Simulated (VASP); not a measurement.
# Lattice constant of fcc nickel from LDA to r2SCAN, with and without dispersion terms

The usual rule of thumb says that LDA makes lattice constants too short, PBE makes them too long, and PBEsol falls between the two and close to experiment. I put it to the test on ferromagnetic nickel, where the choice matters in practice: the lattice constant sets the strain in slabs for catalysis, in magnetic multilayers and in nickel contacts under graphene. The calculated quantity is the cubic lattice constant $a$ of the static crystal at zero pressure, for eight levels of theory, two of which are a listed functional with a dispersion term added. The yardstick is one powder diffraction value, 3.523 Å. I also want to see whether dispersion terms help or harm in a dense metal.

## Set-up

Cells start from entries of a diffraction database. VASP 6.6.1, plane waves with PAW, cutoff 450 eV; cell and atoms fully relaxed at zero pressure at each level, static lattice, no spin-orbit coupling, collinear spin. All ran on Intel(R) Xeon(R) 6975P-C (Granite Rapids), shared with other work, so times are rough. The PAW data sets differ between levels: LDA sets for LDA; PBE sets for PBE, PBEsol, RPBE, r2SCAN and vdW-DF-cx. Non-spherical gradient terms inside the PAW spheres (LASPH) are on in the rows so marked and off in the others; they change results slightly and raise the cost.

Notes on method and selection:

- Measured lattice constants hold zero-point and thermal expansion, some 0.1 to 0.5 % in a at room temperature.
- Only cubic crystals whose measured lattice constant lies within 4 % of the PBEsol one are shown, so larger misses are missing.
- Non-spherical gradient terms in the PAW spheres (LASPH) were on for r2SCAN, r2SCAN + rVV10 and vdW-DF-cx, and off for RPBE, PBE, PBEsol, PBEsol + D3(BJ) and LDA; where rows differ in this, it bears on volumes, moments and cost.
- Runs that did not converge, have known faults or may not be shown are not listed, and runs on Ansatz's PAW sets soft_1 and soft_2 are kept to separate tables.

Columns:

- a (Å): cubic lattice constant.
- cost per step (core-s): processor time per ionic step of the relaxation.

Input lines of one member:

```
PREC = Accurate
ENCUT = 450
EDIFF = 1E-06
NELM = 100
ISMEAR = 1
SIGMA = 0.15
LREAL = .FALSE.
ALGO = Normal
GGA = RP
NBANDS = 11
ISPIN = 2
LMAXMIX = 4
LORBIT = 11
KPAR = 4
IBRION = 2
```

Command (options for logging and memory left out): `mpirun -np 4 vasp_std`

## Computed values

| member | a (Å) | cost per step (core-s) | remark |
| --- | --- | --- | --- |
| RPBE | 3.552 | 19 |  |
| PBE | 3.517 | 19 |  |
| r2SCAN | 3.478 | 110 | LASPH on |
| vdW-DF-cx | 3.471 | 35 | LASPH on |
| r2SCAN + rVV10 | 3.467 | 94 | LASPH on |
| PBEsol | 3.462 | 18 |  |
| PBEsol + D3(BJ) | 3.428 | 19 |  |
| LDA | 3.422 | 18 |  |

a (Å) by member:

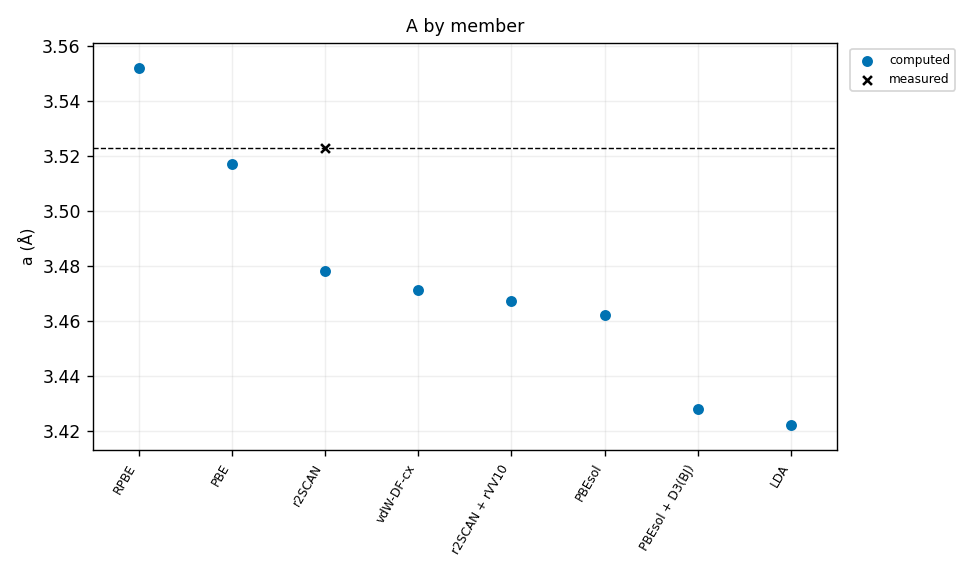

## Reading the trend

The order of the rule holds, but its verdict on accuracy does not. From LDA to PBEsol $a$ grows by 3.462 − 3.422 = 0.040 Å, from PBEsol to PBE by 3.517 − 3.462 = 0.055 Å, and from PBE to RPBE by 3.552 − 3.517 = 0.035 Å. The measured value lies between PBE and RPBE, well above PBEsol.

Theory gives the reason for the order. Gradient-corrected exchange multiplies the LDA exchange energy density by a factor which in PBE and PBEsol reads

$$F_x(s) = 1 + \kappa - \frac{\kappa}{1 + \mu s^2/\kappa},$$

where $s$ is the reduced density gradient, $\kappa$ is about 0.80, and $\mu$ is about 0.22 in PBE and 0.12 in PBEsol. LDA has $F_x = 1$. When the crystal expands, $s$ rises between the atoms, so a steeper $F_x$ rewards expansion. RPBE keeps the same $\mu$ and $\kappa$ as PBE but climbs faster at intermediate $s$, which lengthens $a$ further.

The expansion is not simply proportional to $\mu$. Measured from LDA, PBE lengthens $a$ by 3.517 − 3.422 = 0.095 Å, which is 0.095 / 0.040 = 2.4 times as much as PBEsol does, while the ratio of $\mu$ is 0.22 / 0.12 = 1.8. Gradient-corrected correlation pulls the other way, and PBEsol weakens it less than it weakens exchange, which acts in the right direction to raise the ratio.

Dispersion terms shorten the lattice, because they add an attraction that strengthens as atoms approach. D3(BJ) changes PBEsol by 3.428 − 3.462 = −0.034 Å, and rVV10 changes r2SCAN by 3.467 − 3.478 = −0.011 Å. Since both parent functionals already give too short a lattice, both terms lead away from the measured value. vdW-DF-cx has non-local correlation built in, and the table holds no parent functional from which its dispersion part could be read off.

## Residuals

PBEsol + D3(BJ) departs most clearly from the order set by the gradient terms. It ends only 3.428 − 3.422 = 0.006 Å above LDA, although its exchange and correlation are those of PBEsol. The likeliest reason is that D3 sums attractions between atom pairs with coefficients that do not know how conduction electrons screen them, so the attraction is too strong in a metal. Its closeness to LDA is a coincidence of two different kinds of overbinding.

r2SCAN is the surprise for anyone who expects a higher rung of functional to be more accurate. It lies 3.517 − 3.478 = 0.039 Å below PBE but only 0.016 Å above PBEsol. A plausible reason is that r2SCAN and PBEsol both respect the gradient expansion of the exchange energy for slowly varying densities, which keeps their gradient corrections modest in a metal. The r2SCAN run also used PAW data made for PBE, an inconsistency whose sign I do not know.

## Measured against computed

| member | quantity | measured | computed | computed − measured | conditions | source |
| --- | --- | --- | --- | --- | --- | --- |
| r2SCAN | a (Å) | 3.523 ± 0.001 | 3.478 | −0.045 (−1.3 %) | commercial metal powder; measurement temperature not stated; powder XRD, LeBail refinement; commercial nickel metal powder | [1] |

Sources:

[1] "Abiotic ammonium formation in the presence of Ni-Fe metals and alloys and its implications for the Hadean nitrogen cycle" (2008, PubMed Central 2430951)

Against 3.523 Å, PBE is the best level at 3.517 − 3.523 = −0.006 Å and LDA the worst at 3.422 − 3.523 = −0.101 Å, or roughly −3 %. RPBE is the only level above the measured value, by 3.552 − 3.523 = 0.029 Å. The others fall short: r2SCAN by 3.523 − 3.478 = 0.045 Å, vdW-DF-cx by 3.523 − 3.471 = 0.052 Å, r2SCAN + rVV10 by 3.523 − 3.467 = 0.056 Å, PBEsol by 3.523 − 3.462 = 0.061 Å and PBEsol + D3(BJ) by 3.523 − 3.428 = 0.095 Å.

Lattice expansion cannot excuse the PBEsol error. Even the full 0.5 % amounts to 0.018 Å, or 0.018 / 0.061 = 0.30 of the miss; the rest is mainly overbinding by the functional. For PBE the correction may be smaller or larger than the miss of 0.006 Å, depending on where in the range of 0.1 to 0.5 % it falls, so I would not say whether PBE is slightly short or slightly long for the static crystal.

The measured sample was a commercial powder and its temperature is not stated. The quoted uncertainty of 0.001 Å presumably covers the refinement rather than impurities or instrument alignment. Errors from those sources would have to reach several hundredths of an ångström to rescue PBEsol, which is implausible for a simple cubic pattern.

## Cost against accuracy

The more expensive functional buys no accuracy for this property. r2SCAN takes 110 core-s per ionic step against 19 for PBE, a factor of 110 / 19 = 5.8, and its lattice constant is farther from the measured one. Part of the extra cost comes from the non-spherical terms, which were on for r2SCAN and off for PBE, and part may come from a different number of electronic cycles per step. LDA and the plain gradient-corrected functionals all cost 18 or 19 core-s, so among them accuracy alone can decide. D3(BJ) adds practically nothing to the bill. The lower figure for r2SCAN + rVV10 than for r2SCAN itself is no sign that the dispersion term saves time, since the number of electronic cycles per step varies from run to run.

## Short exercises

**I want RPBE adsorption energies on a nickel slab. What strain do I build in by keeping the PBE lattice constant?**

The strain relative to the RPBE equilibrium is (3.517 − 3.552) / 3.552 = −0.0099, a compression of 1.0 % along each in-plane direction. Compression widens the d band and usually weakens adsorption on a late transition metal, so the slab should be built with 3.552 Å if the surface is meant to be unstrained within RPBE.

**How much do the dispersion terms change the volume per atom?**

The volume scales as $a^3$. For D3(BJ) on PBEsol the ratio is (3.428 / 3.462)³ = 0.971, a loss of 2.9 %. For rVV10 on r2SCAN it is (3.467 / 3.478)³ = 0.991, a loss of 0.9 %.

**PBE is closest to experiment. Which level comes second?**

Against the raw value RPBE does, with a miss of 0.029 Å against 0.045 Å for r2SCAN. The measured crystal, however, holds 0.1 to 0.5 % of zero-point and thermal expansion if it was at room temperature. Removing it gives a static reference between 3.523 / 1.005 = 3.505 Å and 3.523 / 1.001 = 3.519 Å. At the upper end the misses are 3.552 − 3.519 = 0.033 Å for RPBE and 3.519 − 3.478 = 0.041 Å for r2SCAN; at the lower end they are 3.552 − 3.505 = 0.047 Å and 3.505 − 3.478 = 0.027 Å. Second place therefore depends on the correction, while PBE stays first at both ends, with misses of 0.002 Å and 0.012 Å.

## Conclusions

For nickel, stronger gradient enhancement of exchange means a longer lattice, and PBE has about the right amount. This agrees with what is generally found for 3d metals, where LDA and PBEsol bind too tightly; in many 4d and 5d metals PBEsol does better, so the ranking should not be carried over to them. Nor does the size of the PBEsol error here say how large such errors can become, because crystals that PBEsol misses by more than 4 % were left out of the selection.

The static lattice omits zero-point motion and heat, both of which would lengthen every value in the table. That would bring LDA, PBEsol and r2SCAN nearer to the measured value and take RPBE farther from it. Differences of a few thousandths of an ångström, such as that between r2SCAN + rVV10 and PBEsol, are too small to rank levels that also differ in the LASPH setting.

[Logs are printed without paths, hosts, clocks, repeated set-up lines and the standing remarks that a program may print on its own settings, such as how far it seeks lower states.]
